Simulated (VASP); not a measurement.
# Zone-centre gap, electron mass and side valleys of InP (F-43m) under uniaxial [111] stress at TB-mBJ with spin-orbit coupling

Stretching a crystal of InP along [111] and squeezing it along the same axis change its volume in opposite senses, yet both narrow the direct gap. The problem is to explain this, and to find what happens to the electron mass and to the distance of the L and X valleys. These quantities set the emission wavelength of a strained layer, the mobility of its electrons and the field at which they transfer to heavier valleys. The levels are computed with TB-mBJ and spin-orbit coupling on cells relaxed with LDA, free of stress across the axis. Each energy is counted from the valence-band top at the zone centre of the same cell, and changes are taken against the unstrained crystal.

## Calculations

The start is a typed prototype cell. The crystal was relaxed with LDA. Strain is imposed along [111]; the strain across the axis is adjusted until the stress across it vanishes, and the atoms are relaxed with LDA. VASP 6.6.1, plane waves with PAW, cutoff 450 eV, no spin polarisation. Band edges are single points at TB-mBJ with spin-orbit coupling on these cells, k mesh 7×7×7, read on short lines of k points at the zone centre and through the valleys; energies are counted from the valence-band top at the zone centre. Masses are fitted within 0.05 1/Å of the zone centre. All levels use the PAW data sets made with LDA.

Notes on method and selection:

- A valley's energy from the valence-band top holds the shift of that top as well as the shift of the valley.
- The TB-mBJ parameter c is fixed anew from the density of each cell, so it changes along the series.
- Runs that did not converge, have known faults or may not be shown are not listed, and runs on Ansatz's PAW sets soft_1 and soft_2 are kept to separate tables.

Columns:

- strain (%): strain along the axis (tension positive).
- Γ level (eV): lowest conduction level at Γ.
- Δ valley (eV): lowest conduction level along Γ–X.
- L valley (eV): lowest conduction level at the L points.
- mass, axis (mₑ): electron mass at Γ along the axis.
- mass, across (mₑ): electron mass at Γ across the axis.

Input lines of one member:

```
PREC = Accurate
ENCUT = 450
EDIFF = 1E-06
NELM = 150
ISMEAR = 0
SIGMA = 0.02
LREAL = .FALSE.
ALGO = Normal
METAGGA = MBJ
LASPH = .TRUE.
LNONCOLLINEAR = .TRUE.
NBANDS = 28
GGA_COMPAT = .FALSE.
LSORBIT = .TRUE.
KPAR = 2
```

Command (options for logging and memory left out): `mpirun -np 2 vasp_ncl`

## Table of results

```
member  sign of the strain  strain (%)  Γ level (eV)  Δ valley (eV)  L valley (eV)  mass, axis (mₑ)  mass, across (mₑ)
−2 %    compression         −2.0        1.672         2.292          2.035          0.144            0.1248
−1.5 %  compression         −1.5        1.692         2.338          2.111          0.140            0.1255
−1 %    compression         −1.0        1.709         2.379          2.186          0.136            0.1259
−0.5 %  compression         −0.5        ?             ?              ?              ?                ?
0 %     compression         0.0         1.727         2.437          2.323          0.128            0.1280
0 %     tension             0.0         1.727         2.437          2.323          0.128            0.1280
+0.5 %  tension             0.5         1.698         2.427          2.285          0.124            0.1290
+1 %    tension             1.0         1.665         2.412          2.246          0.120            0.1297
+1.5 %  tension             1.5         ?             ?              ?              ?                ?
+2 %    tension             2.0         1.593         2.369          2.167          0.112            0.1304
```

Cells marked ? are withheld until the estimate has been made.

Least-squares fits to the members shown, with x = strain (%); R² and errors in the fitted variable (y, or ln y where the fit is in ln y):

```
y              sign of the strain  members  fit                      R²    rms residual  leave-one-out rms  the same for the mean of the others
Γ level (eV)   compression         4        y = 1.7303 + 0.026971 x  0.96  0.0041        0.012              0.027
Γ level (eV)   tension             4        y = 1.7298 − 0.067486 x  1.00  0.0024        0.0068             0.067
Δ valley (eV)  compression         4        y = 2.442 + 0.07166 x    0.99  0.0063        0.018              0.071
Δ valley (eV)  tension             4        y = 2.4416 − 0.034686 x  0.98  0.0040        0.012              0.035
```

## Interpretation

At 1 % strain the gap falls by 1.727 − 1.665 = 0.062 eV under tension but only by 1.727 − 1.709 = 0.018 eV under compression. Two effects explain the difference. The volume change narrows the gap under tension and widens it under compression. The shear splits the valence-band top, and the upper branch rises for either sign. Half the difference of the two falls, (0.062 − 0.018) / 2 = 0.022 eV, is roughly the volume part; their mean, (0.062 + 0.018) / 2 = 0.040 eV, is mainly the splitting. The splitting wins, so the gap falls on both sides, with a kink at zero strain.

The side valleys are best measured from the Γ conduction level, because the valence-band top then cancels. The L valley lies 2.323 − 1.727 = 0.596 eV above it without strain, 2.035 − 1.672 = 0.363 eV at −2 % and 2.167 − 1.593 = 0.574 eV at +2 %. By symmetry, [111] stress separates the L valley on the axis from the other three. Compression lowers the single one strongly; tension lowers the three, each by less. The volume change adds to this: expansion lowers Γ faster than L, which offsets much of the lowering under tension, while contraction brings L still closer to Γ. The X valleys (column Δ valley, whose lowest point lies at X itself) stay equivalent, and their distance from Γ grows from 2.292 − 1.672 = 0.620 eV at −2 % to 2.369 − 1.593 = 0.776 eV at +2 %. InP keeps its direct gap in every row shown.

The mass along the axis falls steadily with strain, by (0.144 − 0.112) / 4.0 = 0.008 mₑ per %, while the mass across it rises slightly. The usual rule, that a smaller gap to the valence states gives a lighter electron, predicts the opposite anisotropy: compression lifts the p state along the axis and should lighten motion along it. A possible cause is that [111] strain mixes p character into the s-like conduction state and so changes its coupling to the valence band. TB-mBJ is known to make electron masses too heavy, so the changes are more useful than the absolute masses.

## Blind estimate

Plain estimates from the members shown:

- +1.5 % (tension), fit at x = 1.5: 1.629 eV
- +1.5 % (tension), straight-line interpolation between +1 % and +2 %: w = (1.5 − 1.0) / (2.0 − 1.0) = 0.500, so 1.665 + 0.500 × (1.593 − 1.665) = 1.629 eV
- −0.5 % (compression), fit at x = −0.5: 1.717 eV
- −0.5 % (compression), straight-line interpolation between −1 % and 0 %: w = (−0.5 − (−1.0)) / (0.0 − (−1.0)) = 0.500, so 1.709 + 0.500 × (1.727 − 1.709) = 1.718 eV

Both missing gaps lie between computed neighbours, but the curve bends downward on each side, so a straight line between neighbours falls slightly low. A parabola through three points on the same side of zero corrects this without crossing the kink.

For +1.5 %, the slopes are (1.665 − 1.698) / 0.5 = −0.066 and (1.593 − 1.665) / 1.0 = −0.072 eV per %. The curvature term is (−0.072 + 0.066) / 1.5 = −0.004, and the correction is −0.004 × 0.5 × (−0.5) = +0.001 eV. The estimate is 1.629 + 0.001 = 1.630 eV.

For −0.5 %, the slopes are 0.018 between −1 % and zero and (1.709 − 1.692) / 0.5 = 0.034 between −1.5 % and −1 %. The curvature term is (0.018 − 0.034) / 1.5 = −0.0107, and the correction is −0.0107 × 0.5 × (−0.5) = +0.0027 eV. The estimate is 1.718 + 0.0027 = 1.721 eV. The stronger bend is expected here, since under compression the upper valence branch mixes with the split-off level and is pushed up further.

Tried on shown members, the parabola through the other three tension rows gives (8 × 1.698 + 1.593 − 3 × 1.727) / 6 = 1.666 eV at +1 % (table: 1.665), and that through the other three compression rows gives (8 × 1.692 + 1.727 − 3 × 1.672) / 6 = 1.708 eV at −1 % (table: 1.709). Misses of about 0.001 eV set the error bar for both estimates.

**Committed estimate, +1.5 % (tension): Γ level = 1.630 ± 0.001 eV.**  
**Committed estimate, −0.5 % (compression): Γ level = 1.721 ± 0.001 eV.**

## Check

```
member  sign of the strain  strain (%)  Γ level (eV)  Δ valley (eV)  L valley (eV)  mass, axis (mₑ)  mass, across (mₑ)
−0.5 %  compression         −0.5        1.723         2.414          2.260          0.132            0.1268
+1.5 %  tension             1.5         1.630         2.392          2.207          0.116            0.1300
```

```
member                estimate       Γ level (eV)  computed  estimate − computed  miss in error bars
+1.5 % (tension)      committed      1.630         1.630     0.000                0.0
+1.5 % (tension)      fit            1.629         1.630     −0.001
+1.5 % (tension)      interpolation  1.629         1.630     −0.001
−0.5 % (compression)  committed      1.721         1.723     −0.002               2.0
−0.5 % (compression)  fit            1.717         1.723     −0.006
−0.5 % (compression)  interpolation  1.718         1.723     −0.005
```

Γ level (eV) against strain (%):

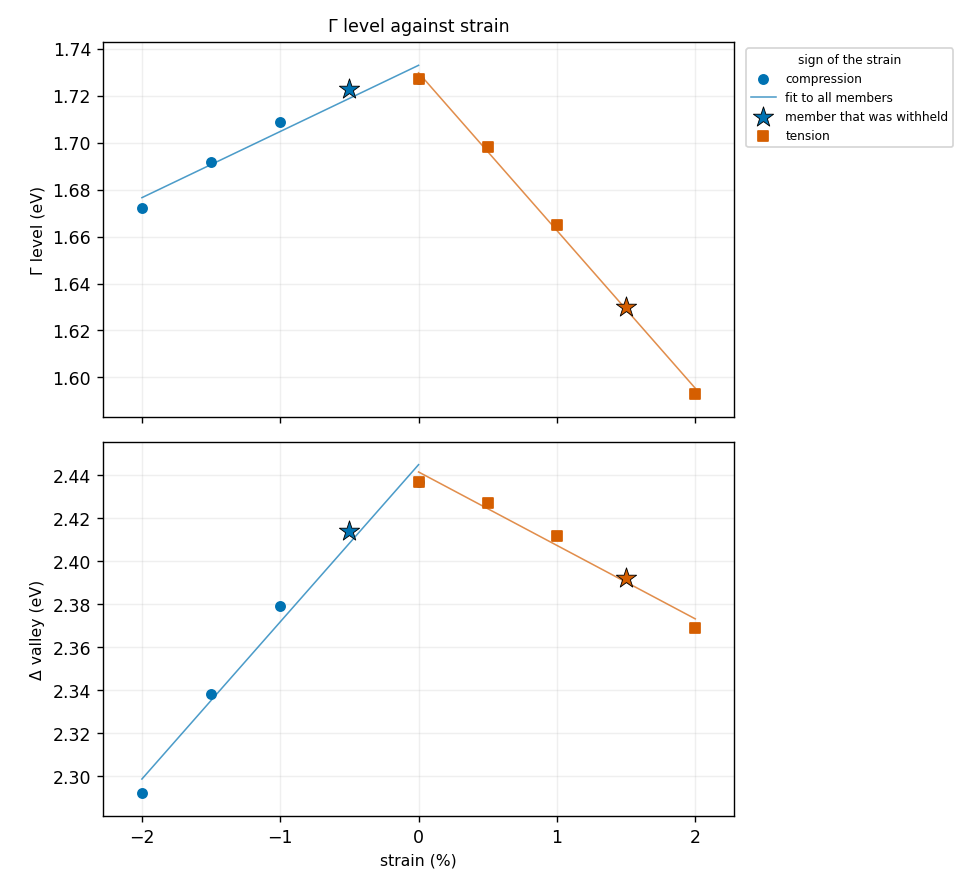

The estimate for +1.5 % agrees with the computed gap of 1.630 eV to the printed digit; both plain estimates are 0.001 eV low. At −0.5 % the estimate of 1.721 eV is 0.002 eV too low, which is two error bars and so outside. It still comes nearer than the interpolation (0.005 eV low) and the fit (0.006 eV low).

The argument for a downward bend on each side held. The assumption that one parabola describes the whole compression side failed. From zero to −2 % the gap falls by 0.004, 0.014, 0.017 and 0.020 eV per half per cent, so the slope changes most near zero. This fits the mixing of the upper valence branch with the split-off level, which sets in while the strain splitting is still smaller than the spin-orbit splitting. The trial at −1 % did not probe that region, and the error bar taken from it was too small.

The mixing also affects the earlier division at 1 % strain, which gave 0.022 eV per % for the volume part. At 0.5 %, where mixing matters less, half the difference of the two falls is (0.029 − 0.004) / 2 = 0.0125 eV, or 0.0125 / 0.5 = 0.025 eV per %.

## Exceptions

Least-squares fits to the whole series, with x = strain (%); R² and errors in the fitted variable (y, or ln y where the fit is in ln y):

```
y              sign of the strain  members  fit                      R²    rms residual  leave-one-out rms  the same for the mean of the others
Γ level (eV)   compression         5        y = 1.733 + 0.02820 x    0.96  0.0043        0.0090             0.026
Γ level (eV)   tension             5        y = 1.7298 − 0.067200 x  1.00  0.0022        0.0045             0.059
Δ valley (eV)  compression         5        y = 2.445 + 0.07320 x    0.99  0.0063        0.013              0.065
Δ valley (eV)  tension             5        y = 2.4416 − 0.034200 x  0.98  0.0037        0.0077             0.031
```

Largest departures from the fit to the whole series:

```
member  sign of the strain  Γ level (eV)  fit    computed − fit  in rms residuals
0 %     compression         1.727         1.733  −0.006          1.4
0 %     tension             1.727         1.730  −0.003          1.3
+1 %    tension             1.665         1.663  +0.002          1.1
+2 %    tension             1.593         1.595  −0.002          1.1
```

No row stands out: the largest departure is −0.006 eV, for the unstrained crystal on the compression line, or 1.4 rms residuals. On both sides the end rows lie below the line and the middle rows above it, as expected when a straight line is laid through a curve that bends downward.

## Conclusions and limits

Between −2 % and +2 % the gap is largest in the unstrained row and falls for either sign of strain, faster under tension. The lowest side valley is L in every row, at least 0.363 eV above the Γ conduction level; compression brings it closer, which by itself favours transfer at a lower field. The mass along the axis falls by 0.008 mₑ per % from compression to tension, which by itself favours mobility along the axis under tension.

A missing gap inside either side can be interpolated with a parabola to about 0.002 eV, provided the points do not straddle zero strain.

For an emitter, the wavelength at the gap grows by a factor of 1.727 / 1.665 = 1.037 at +1 %, but only 1.727 / 1.709 = 1.011 at −1 %.

The absolute gap of the unstrained crystal is too wide by roughly 0.3 eV against low-temperature measurement, more than the 1.727 − 1.593 = 0.134 eV spread of the table; the slightly small LDA cell contributes to this. Temperature is left out as well: warming from low temperature to room temperature lowers the gap by roughly 0.07 eV, less than that spread, and zero-point motion lowers it further.

[Logs are printed without paths, hosts, clocks, repeated set-up lines and the standing remarks that a program may print on its own settings, such as how far it seeks lower states.]
